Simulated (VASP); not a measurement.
# Nb (Im-3m) under biaxial (001) strain: normal strain, stress, strain energy and elastic moduli with r2SCAN

At 0.5 % biaxial strain, Nb resists stretching and compression almost equally, with in-plane stresses of 1.27 and −1.28 GPa. At 2 % the balance is gone: 4.34 GPa in tension against −5.24 GPa in compression. We examine where this asymmetry enters and which moduli can be taken from the range before it. The question matters for strained films, where linear elasticity is commonly used to turn a measured lattice strain into a stress. Strains and energies are counted from the cubic crystal relaxed with r2SCAN, on a static lattice. The strain lies in the (001) plane, tension is positive, and the normal is free of stress, so the crystal becomes tetragonal (I4/mmm).

## Set-up

The start is an entry of the ASE's table of reference states database. The crystal was relaxed with r2SCAN. Equal strain is imposed in the (001) plane; the strain along the normal is adjusted until the normal stress vanishes, and the atoms are relaxed with r2SCAN. VASP 6.6.1, plane waves with PAW, cutoff 450 eV, no spin polarisation, no spin-orbit coupling, k mesh 25×25×25, static lattice. The same in all rows: band gap on the k mesh at r2SCAN: 0.000 eV.

Notes on method and selection:

- Runs that did not converge, have known faults or may not be shown are not listed, and runs on Ansatz's PAW sets soft_1 and soft_2 are kept to separate tables.

Columns:

- strain (%): strain in the plane (tension positive).
- normal strain (%): strain along the normal.
- stress (GPa): in-plane stress, tension positive.
- strain energy (meV/atom): energy per atom above the relaxed crystal.

Input lines of one member:

```
PREC = Accurate
ENCUT = 450
EDIFF = 1E-07
NELM = 120
ISMEAR = 1
SIGMA = 0.15
LREAL = .FALSE.
ALGO = Normal
METAGGA = R2SCAN
LASPH = .TRUE.
NBANDS = 12
LORBIT = 11
KPAR = 2
IBRION = 1
NSW = 25
```

Command (options for logging and memory left out): `mpirun -np 2 vasp_std`

## The series

```
member  strain (%)  normal strain (%)  stress (GPa)  strain energy (meV/atom)
−2 %    −2.0        2.180              −5.24         12.31
−1.5 %  −1.5        1.614              −3.91         6.99
−1 %    −1.0        1.067              −2.59         3.17
−0.5 %  −0.5        0.530              −1.28         0.86
0 %     0.0         0.006              0.00          −0.02
+0.5 %  0.5         −0.511             1.27          0.51
+1 %    1.0         −1.029             2.46          2.47
+1.5 %  1.5         −1.571             3.54          5.74
+2 %    2.0         −2.199             4.34          10.19
```

normal strain (%) against strain (%):

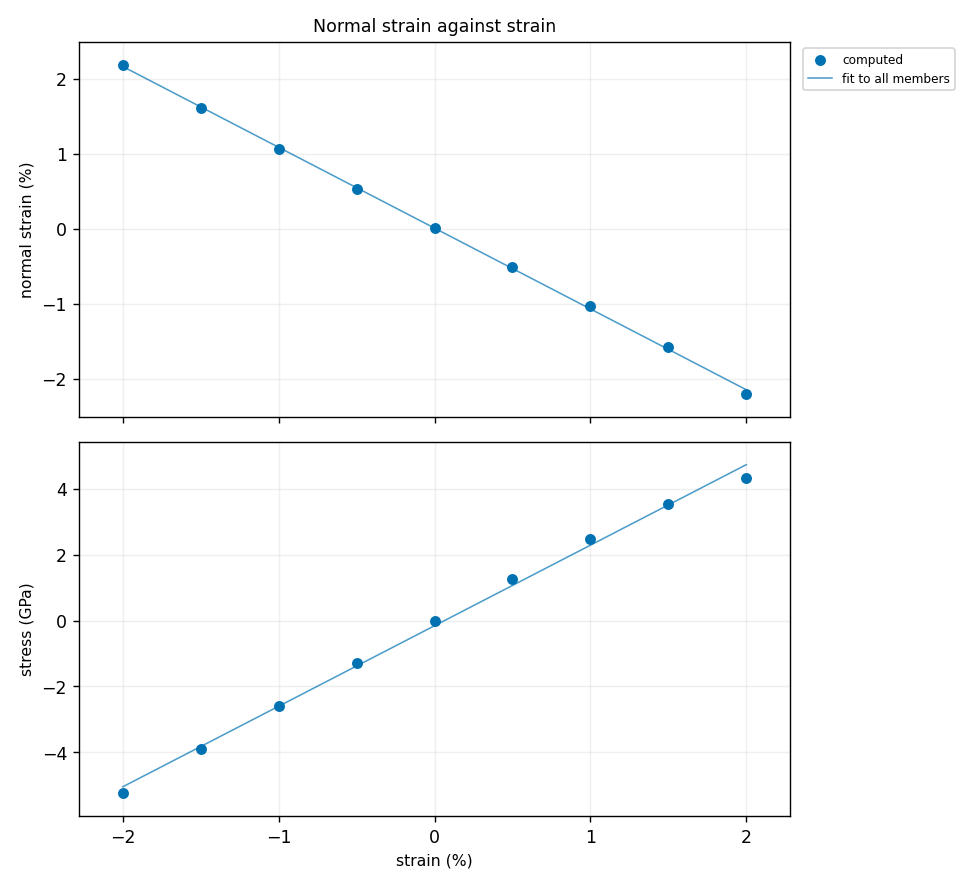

Least-squares fits to the whole series, with x = strain (%); R² and errors in the fitted variable (y, or ln y where the fit is in ln y):

```
y                  members  fit                     R²    rms residual  leave-one-out rms  the same for the mean of the others
normal strain (%)  9        y = 0.009667 − 1.077 x  1.00  0.028         0.040              1.6
stress (GPa)       9        y = −0.1567 + 2.444 x   1.00  0.18          0.27               3.6
```

## Why the values move as they do

From −2 % to +2 % the normal strain falls from 2.180 to −2.199 % and the stress rises from −5.24 to 4.34 GPa. The energy grows roughly as the square of the strain on either side of zero.

The simplest model assumes constant cubic moduli and zero normal stress. No internal relaxation enters, because the single atom of the primitive cell sits on a site fixed by symmetry. With e the in-plane strain, n the normal strain and σ the in-plane stress, Hooke's law reads

σ = (C₁₁ + C₁₂)e + C₁₂n

0 = 2C₁₂e + C₁₁n

The second line gives the normal strain:

n = −Re, with R = 2C₁₂/C₁₁

Inserted in the first, it gives the stress:

σ = Me, with M = C₁₁ + C₁₂ − 2C₁₂²/C₁₁

Work is done along two in-plane directions and none along the normal, so dU = 2Vσ de, where V is the volume per atom. Integration gives the energy:

U = ke², with k = VM

The three parameters are therefore R, M and k.

The same two equations separate a change of shape from a change of volume. Their difference and their sum over the three axes are

σ = (C₁₁ − C₁₂)(e − n)

2σ = 3K(2e + n), with the bulk modulus K = (C₁₁ + 2C₁₂)/3

Hence C₁₁ − C₁₂ = M/(1 + R) and K = 2M/[3(2 − R)]. The shear constant C₄₄ does not follow, since this strain contains no shear of the cube angles.

The sign of n has a simple cause. Stretching the plane increases the volume, which the crystal resists, and contraction along the free normal takes back part of the increase. With R close to 1, about half of it is recovered. The contraction costs a change of shape, and the balance between K and C₁₁ − C₁₂ sets R.

## The model against the table

We fix the model on the members −0.5 % and +0.5 %, and count the energy from the 0 % row, whose −0.02 meV/atom is a numerical offset.

- R = (0.530 + 0.511) / 1.0 = 1.041
- M = (1.27 + 1.28) / 1.0 = 2.55 GPa per %, or 2.55 × 100 = 255 GPa
- k = ((0.86 + 0.51) / 2 + 0.02) / (0.5 × 0.5) = 2.82 meV/atom per %²

The moduli follow:

- C₁₁ − C₁₂ = 255 / (1 + 1.041) = 125 GPa
- K = 2 × 255 / (3 × (2 − 1.041)) = 177 GPa
- C₁₁ = 177 + 2 × 125 / 3 = 260 GPa
- C₁₂ = 177 − 125 / 3 = 135 GPa

We take them as good to a few GPa. As a check, k/M gives a volume of 2.82 × 100 / (2.55 × 6.24) = 17.7 Å³ per atom, close to the known atomic volume of niobium (1 GPa Å³ = 6.24 meV).

For four other members the model gives:

**−2 %**
- n = 1.041 × 2 = 2.082 %; table 2.180
- σ = −2.55 × 2 = −5.10 GPa; table −5.24
- U = 2.82 × 4 − 0.02 = 11.26 meV/atom; table 12.31

**−1 %**
- n = 1.041 × 1 = 1.041 %; table 1.067
- σ = −2.55 × 1 = −2.55 GPa; table −2.59
- U = 2.82 × 1 − 0.02 = 2.80 meV/atom; table 3.17

**+1 %**
- n = −1.041 × 1 = −1.041 %; table −1.029
- σ = 2.55 × 1 = 2.55 GPa; table 2.46
- U = 2.82 × 1 − 0.02 = 2.80 meV/atom; table 2.47

**+2 %**
- n = −1.041 × 2 = −2.082 %; table −2.199
- σ = 2.55 × 2 = 5.10 GPa; table 4.34
- U = 2.82 × 4 − 0.02 = 11.26 meV/atom; table 10.19

The energy errors nearly cancel between opposite strains: the mean of the ±2 % rows is (12.31 + 10.19) / 2 = 11.25 meV/atom.

## Where the trend breaks

Largest departures from the fit to the whole series:

```
member  normal strain (%)  fit     computed − fit  in rms residuals
+2 %    −2.199             −2.144  −0.055          1.9
+1 %    −1.029             −1.067  +0.038          1.4
+1.5 %  −1.571             −1.606  +0.035          1.2
−1 %    1.067              1.087   −0.020          0.7
```

The stress fails mainly in tension. The linear value is too high by 5.10 − 4.34 = 0.76 GPa at +2 %, but too small in magnitude by only 0.14 GPa at −2 %. The assumption that fails is that of constant moduli, and the two moduli fail differently. From −2 % to +2 %, K taken row by row from 2σ = 3K(2e + n) falls steadily, as expected when bonds soften on stretching: from 2 × 5.24 / (3 × (4 − 2.180)) = 1.92 GPa per %, or 1.92 × 100 = 192 GPa, to 2 × 4.34 / (3 × (4 − 2.199)) = 1.61 GPa per %, or 1.61 × 100 = 161 GPa. C₁₁ − C₁₂ stays near 125 GPa throughout compression, then drops to 103 GPa at +2 % (4.34 / (2.0 + 2.199) = 1.03 GPa per %). A possible cause is a transfer of electrons between d bands split by the tetragonal strain, which would lower the energy and soften the shear.

The same two moduli account for the departures of the normal strain. The ratio −n/e falls from 2.180 / 2.0 = 1.09 at −2 % to 0.511 / 0.5 = 1.02 at +0.5 %, as K falls. It then rises to 2.199 / 2.0 = 1.10 at +2 %, as C₁₁ − C₁₂ drops and the change of shape becomes cheaper.

The energy shows a different fault. It is lower in tension already at 0.5 %, where the stresses are nearly symmetric. Its slope at zero strain is (0.51 − 0.86) / 1.0 = −0.35 meV/atom per %, although the stress there is 0.00 GPa. A plausible cause is the finite plane-wave basis, which shifts the computed stress but hardly the energy differences. A crystal relaxed to zero computed stress is then slightly too small, so its energy still falls on stretching; a higher cutoff would test this. An isotropic stress error of 0.35 / (1.11 × 0.959) = 0.33 GPa would account for it, with V = 2.82 / 2.55 = 1.11 meV/atom per GPa % and 2 − R = 2 − 1.041 = 0.959.

## Rules of thumb and their limits

With the small-strain modulus of 255 GPa, linear elasticity gives the stress to within about 4 % in the rows from −2 % to +1 %. The error then grows to 7 % of the linear value at +1.5 % and 15 % at +2 %. The straight line through the whole series has a slope of only 244 GPa, because it averages over the softening in tension; its R² of 1.00 does not reveal this.

The omitted effect that rivals the stresses themselves is plastic flow. Ordinary ductile metals yield at roughly a few tenths of a GPa, so in bulk metal flow would remove most of the 4 to 5 GPa found at ±2 %. The calculated stresses apply to a crystal that stays free of dislocations.

[Logs are printed without paths, hosts, clocks, repeated set-up lines and the standing remarks that a program may print on its own settings, such as how far it seeks lower states.]
